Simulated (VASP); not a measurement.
# Biaxial (001) strain of bcc Nb at the PBEsol level: normal strain, stress, strain energy and the moduli C₁₁ and C₁₂

Calculated are the normal strain, the in-plane stress and the strain energy of body-centred cubic Nb when both in-plane axes of the (001) plane are strained equally, from −2 % to +2 %. Strains are measured against the crystal relaxed with PBEsol, and so is the energy, which is given per atom. The questions are how each quantity depends on the imposed strain, which elastic moduli follow, and where the linear description fails. This is the deformation of an epitaxial (001) film whose surface is free to move along the normal. The response of such a film is governed by a combination of moduli, and the same data allow two of the three cubic elastic constants to be recovered.

## How the numbers were made

The start is an entry of the ASE's table of reference states database. The crystal was relaxed with PBEsol. Equal strain is imposed in the (001) plane; the strain along the normal is adjusted until the normal stress vanishes, and the atoms are relaxed with PBEsol. VASP 6.6.1, plane waves with PAW, cutoff 450 eV, no spin polarisation, no spin-orbit coupling, k mesh 25×25×25, static lattice. The same in all rows: band gap on the k mesh at PBEsol: 0.000 eV.

Notes on method and selection:

- Runs that did not converge, have known faults or may not be shown are not listed, and runs on Ansatz's PAW sets soft_1 and soft_2 are kept to separate tables.

Columns:

- strain (%): strain in the plane (tension positive).
- normal strain (%): strain along the normal.
- stress (GPa): in-plane stress, tension positive.
- strain energy (meV/atom): energy per atom above the relaxed crystal.

Input lines of one member:

```
PREC = Accurate
ENCUT = 450
EDIFF = 1E-07
NELM = 120
ISMEAR = 1
SIGMA = 0.15
LREAL = .FALSE.
ALGO = Normal
GGA = PS
NBANDS = 12
LASPH = .TRUE.
LORBIT = 11
KPAR = 2
IBRION = 1
NSW = 25
```

Command (options for logging and memory left out): `mpirun -np 2 vasp_std`

## Table of results

| member | strain (%) | normal strain (%) | stress (GPa) | strain energy (meV/atom) |
| --- | --- | --- | --- | --- |
| −2 % | −2.0 | 2.202 | −5.38 | 12.39 |
| −1.5 % | −1.5 | 1.643 | −3.97 | 7.085 |
| −1 % | −1.0 | 1.090 | −2.61 | 3.272 |
| −0.5 % | −0.5 | 0.543 | −1.28 | 0.9333 |
| 0 % | 0.0 | 0.000 | −0.01 | 0.01739 |
| +0.5 % | 0.5 | −0.539 | 1.23 | 0.4466 |
| +1 % | 1.0 | −1.082 | 2.43 | 2.212 |
| +1.5 % | 1.5 | −1.656 | 3.52 | 5.293 |
| +2 % | 2.0 | −2.305 | 4.37 | 9.534 |

normal strain (%) against strain (%):

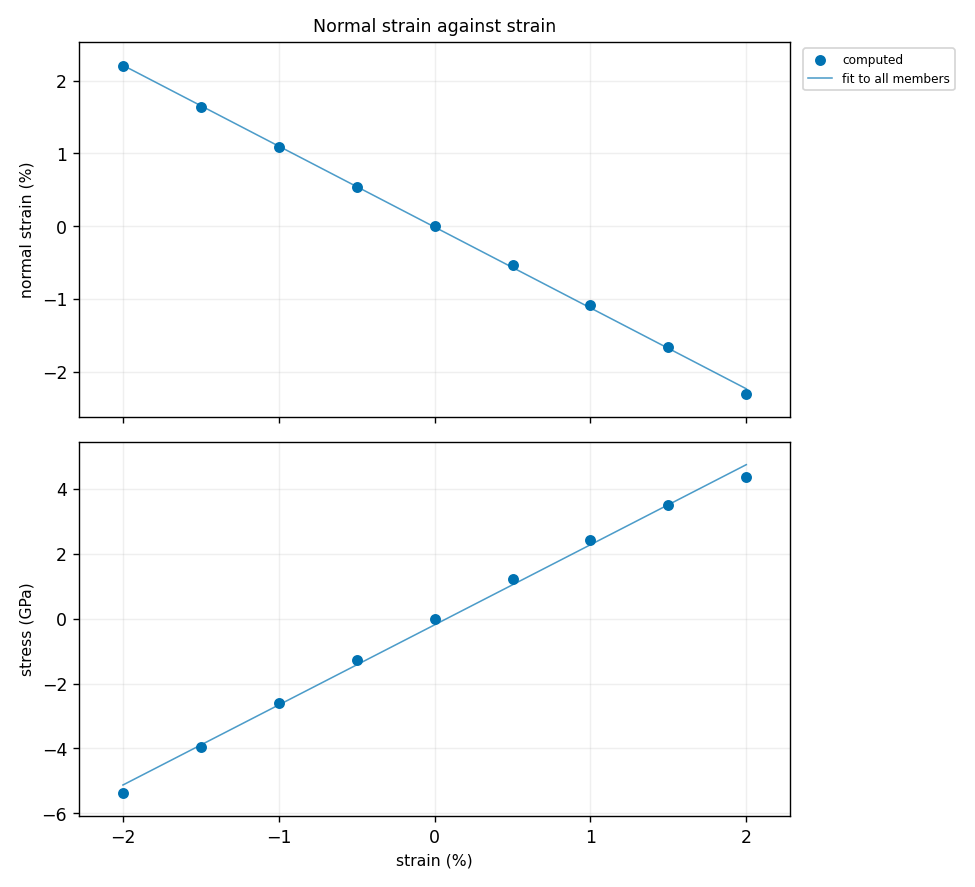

Least-squares fits to the whole series, with x = strain (%); R² and errors in the fitted variable (y, or ln y where the fit is in ln y):

| y | members | fit | R² | rms residual | leave-one-out rms | the same for the mean of the others |
| --- | --- | --- | --- | --- | --- | --- |
| normal strain (%) | 9 | y = −0.01156 − 1.112 x | 1.00 | 0.031 | 0.045 | 1.6 |
| stress (GPa) | 9 | y = −0.1889 + 2.469 x | 1.00 | 0.19 | 0.28 | 3.6 |

## The trend and its physics

Tension in the plane makes the crystal contract along the normal by slightly more than the imposed strain. The stress rises by about 2.5 GPa per percent, and the energy grows roughly as the square of the strain. At equal size, compression costs more energy than tension.

The simplest model assumes that stress is linear in strain, that the moduli keep their cubic values, and that the normal stress is zero. With one atom in the primitive cell there is no internal relaxation to add. Let $\varepsilon$ be the in-plane strain and $\varepsilon_n$ the normal strain. The normal stress is

$$\sigma_n = 2C_{12}\,\varepsilon + C_{11}\,\varepsilon_n = 0,$$

which gives

$$\varepsilon_n = -r\,\varepsilon, \qquad r = 2C_{12}/C_{11}.$$

The in-plane stress is

$$\sigma = (C_{11}+C_{12})\,\varepsilon + C_{12}\,\varepsilon_n.$$

Inserting $\varepsilon_n$ and $C_{12} = rC_{11}/2$ leaves

$$\sigma = M\varepsilon, \qquad M = C_{11}(1+r)(1-r/2).$$

Each of the two in-plane directions contributes work $\sigma\varepsilon/2$ per volume, and the normal direction contributes none. With $V_0$ the volume per atom, the strain energy per atom is therefore

$$E = V_0 M \varepsilon^2.$$

The three parameters are $r$, $M$ and $V_0$. The first two fix $C_{11}$ and $C_{12}$, and with them the bulk modulus $B = (C_{11}+2C_{12})/3$ and the tetragonal shear modulus $C' = (C_{11}-C_{12})/2$. The constant $C_{44}$ does not enter, because the cube axes stay at right angles.

The ratio $r$ reflects a competition between volume and shape. A crystal that kept its volume would have $r = 2$. Here $r$ is near 1.1, so the volume grows by about 0.9 % for each percent of tension, and the resistance to a change of shape carries part of the load.

## Testing the model

The model is fixed on the members −1 % and +1 %, with strains in percent.

- Normal strain: $r$ = (1.090 + 1.082) / 2 = 1.086.
- Stress: $M$ = (2.61 + 2.43) / 2 = 2.52 GPa per percent, or 2.52 × 100 = 252 GPa.
- Energy: $V_0M$ = (3.272 + 2.212) / 2 = 2.742 meV per atom and percent squared. The 0.01739 meV at zero strain is small enough to neglect here.

The elastic constants follow as $C_{11}$ = 252 / ((1 + 1.086) × (1 − 1.086 / 2)) = 264 GPa and $C_{12}$ = 1.086 × 264 / 2 = 143 GPa. Hence $B$ = (264 + 2 × 143) / 3 = 183 GPa, and $C'$ = (264 − 143) / 2, about 60 GPa. The pair at ±0.5 % has $r$ = (0.543 + 0.539) / 1.0 = 1.082 and $M$ = (1.28 + 1.23) / 1.0 = 2.51 GPa per percent, or 2.51 × 100 = 251 GPa, which gives $C_{11}$ = 251 / ((1 + 1.082) × (1 − 1.082 / 2)) = 263 GPa and $C_{12}$ = 1.082 × 263 / 2 = 142 GPa.

With 1 GPa Å³ = 6.24 meV, the energy implies $V_0$ = 2.742 / (2.52 × 0.01 × 6.24) = 17.4 Å³, in agreement with the relaxed cell. Stress and averaged energy thus give the same modulus.

Four other members test the model:

- **−2 %:** normal strain 1.086 × 2 = 2.172 % (table 2.202); stress −2.52 × 2 = −5.04 GPa (−5.38); energy 2.742 × 4 = 10.97 meV (12.39).
- **−0.5 %:** 1.086 × 0.5 = 0.543 % (0.543); −2.52 × 0.5 = −1.26 GPa (−1.28); 2.742 × 0.5 × 0.5 = 0.686 meV (0.9333).
- **+0.5 %:** −0.543 % (−0.539); 1.26 GPa (1.23); 0.686 meV (0.4466).
- **+2 %:** −2.172 % (−2.305); 5.04 GPa (4.37); 10.97 meV (9.534).

## Members off the line

Largest departures from the fit to the whole series:

| member | normal strain (%) | fit | computed − fit | in rms residuals |
| --- | --- | --- | --- | --- |
| +2 % | −2.305 | −2.236 | −0.069 | 2.3 |
| +1 % | −1.082 | −1.124 | +0.042 | 1.4 |
| +0.5 % | −0.539 | −0.568 | +0.029 | 0.9 |
| +1.5 % | −1.656 | −1.680 | +0.024 | 0.8 |

For stress and normal strain the largest failure is at +2 %, where the model stress is 5.04 − 4.37 = 0.67 GPa too high and the model contraction 2.305 − 2.172 = 0.133 % too small. The assumption of constant moduli fails there. From +0.5 to +1 % the stress rises by (2.43 − 1.23) / 0.5 = 2.40 GPa per percent, but from +1.5 to +2 % by only (4.37 − 3.52) / 0.5 = 1.70 GPa per percent. Ordinary anharmonicity has this sign, since stretched bonds soften. Under compression, however, the slope changes much more slowly, from (5.38 − 3.97) / 0.5 = 2.82 to (2.61 − 1.28) / 0.5 = 2.66 GPa per percent. The much faster softening at large tension may therefore have a further cause, and a redistribution of electrons among d bands near the Fermi level is a possible one.

The energy departs differently: its error changes sign with the strain and is already large at ±0.5 %. The energy slope there, (0.4466 − 0.9333) / 1.0 = −0.487 meV per percent, corresponds to a stress of −0.487 / (2 × 17.4 × 0.01 × 6.24) = −0.22 GPa at zero strain, whereas the table gives −0.01 GPa. What fails is the assumption that the energy is the work of the tabulated stress. A likely cause is the fixed plane-wave cutoff: an expanded cell receives more plane waves, which lowers its energy without entering the stress. Averaging over opposite strains removes this term.

## Conclusions

Linear elasticity reproduces the stress to within 4 % for the members up to ±1 % and to within about 7 % at ±1.5 %. At +2 % it overestimates the stress by 15 %. The normal strain is followed more closely, to within 2 % everywhere except at +2 %, where the miss is 6 %.

The elastic constants from the two smallest pairs of strains differ by only about 1 GPa. Two omitted effects are probably larger than that. Lattice vibrations, absent from a static calculation, would lower the biaxial modulus by roughly a few percent at room temperature. The choice of functional matters by a similar amount: PBE, which usually gives larger lattice constants than PBEsol, would be expected to give moduli lower by roughly 5 %.

[Logs are printed without paths, hosts, clocks, repeated set-up lines and the standing remarks that a program may print on its own settings, such as how far it seeks lower states.]
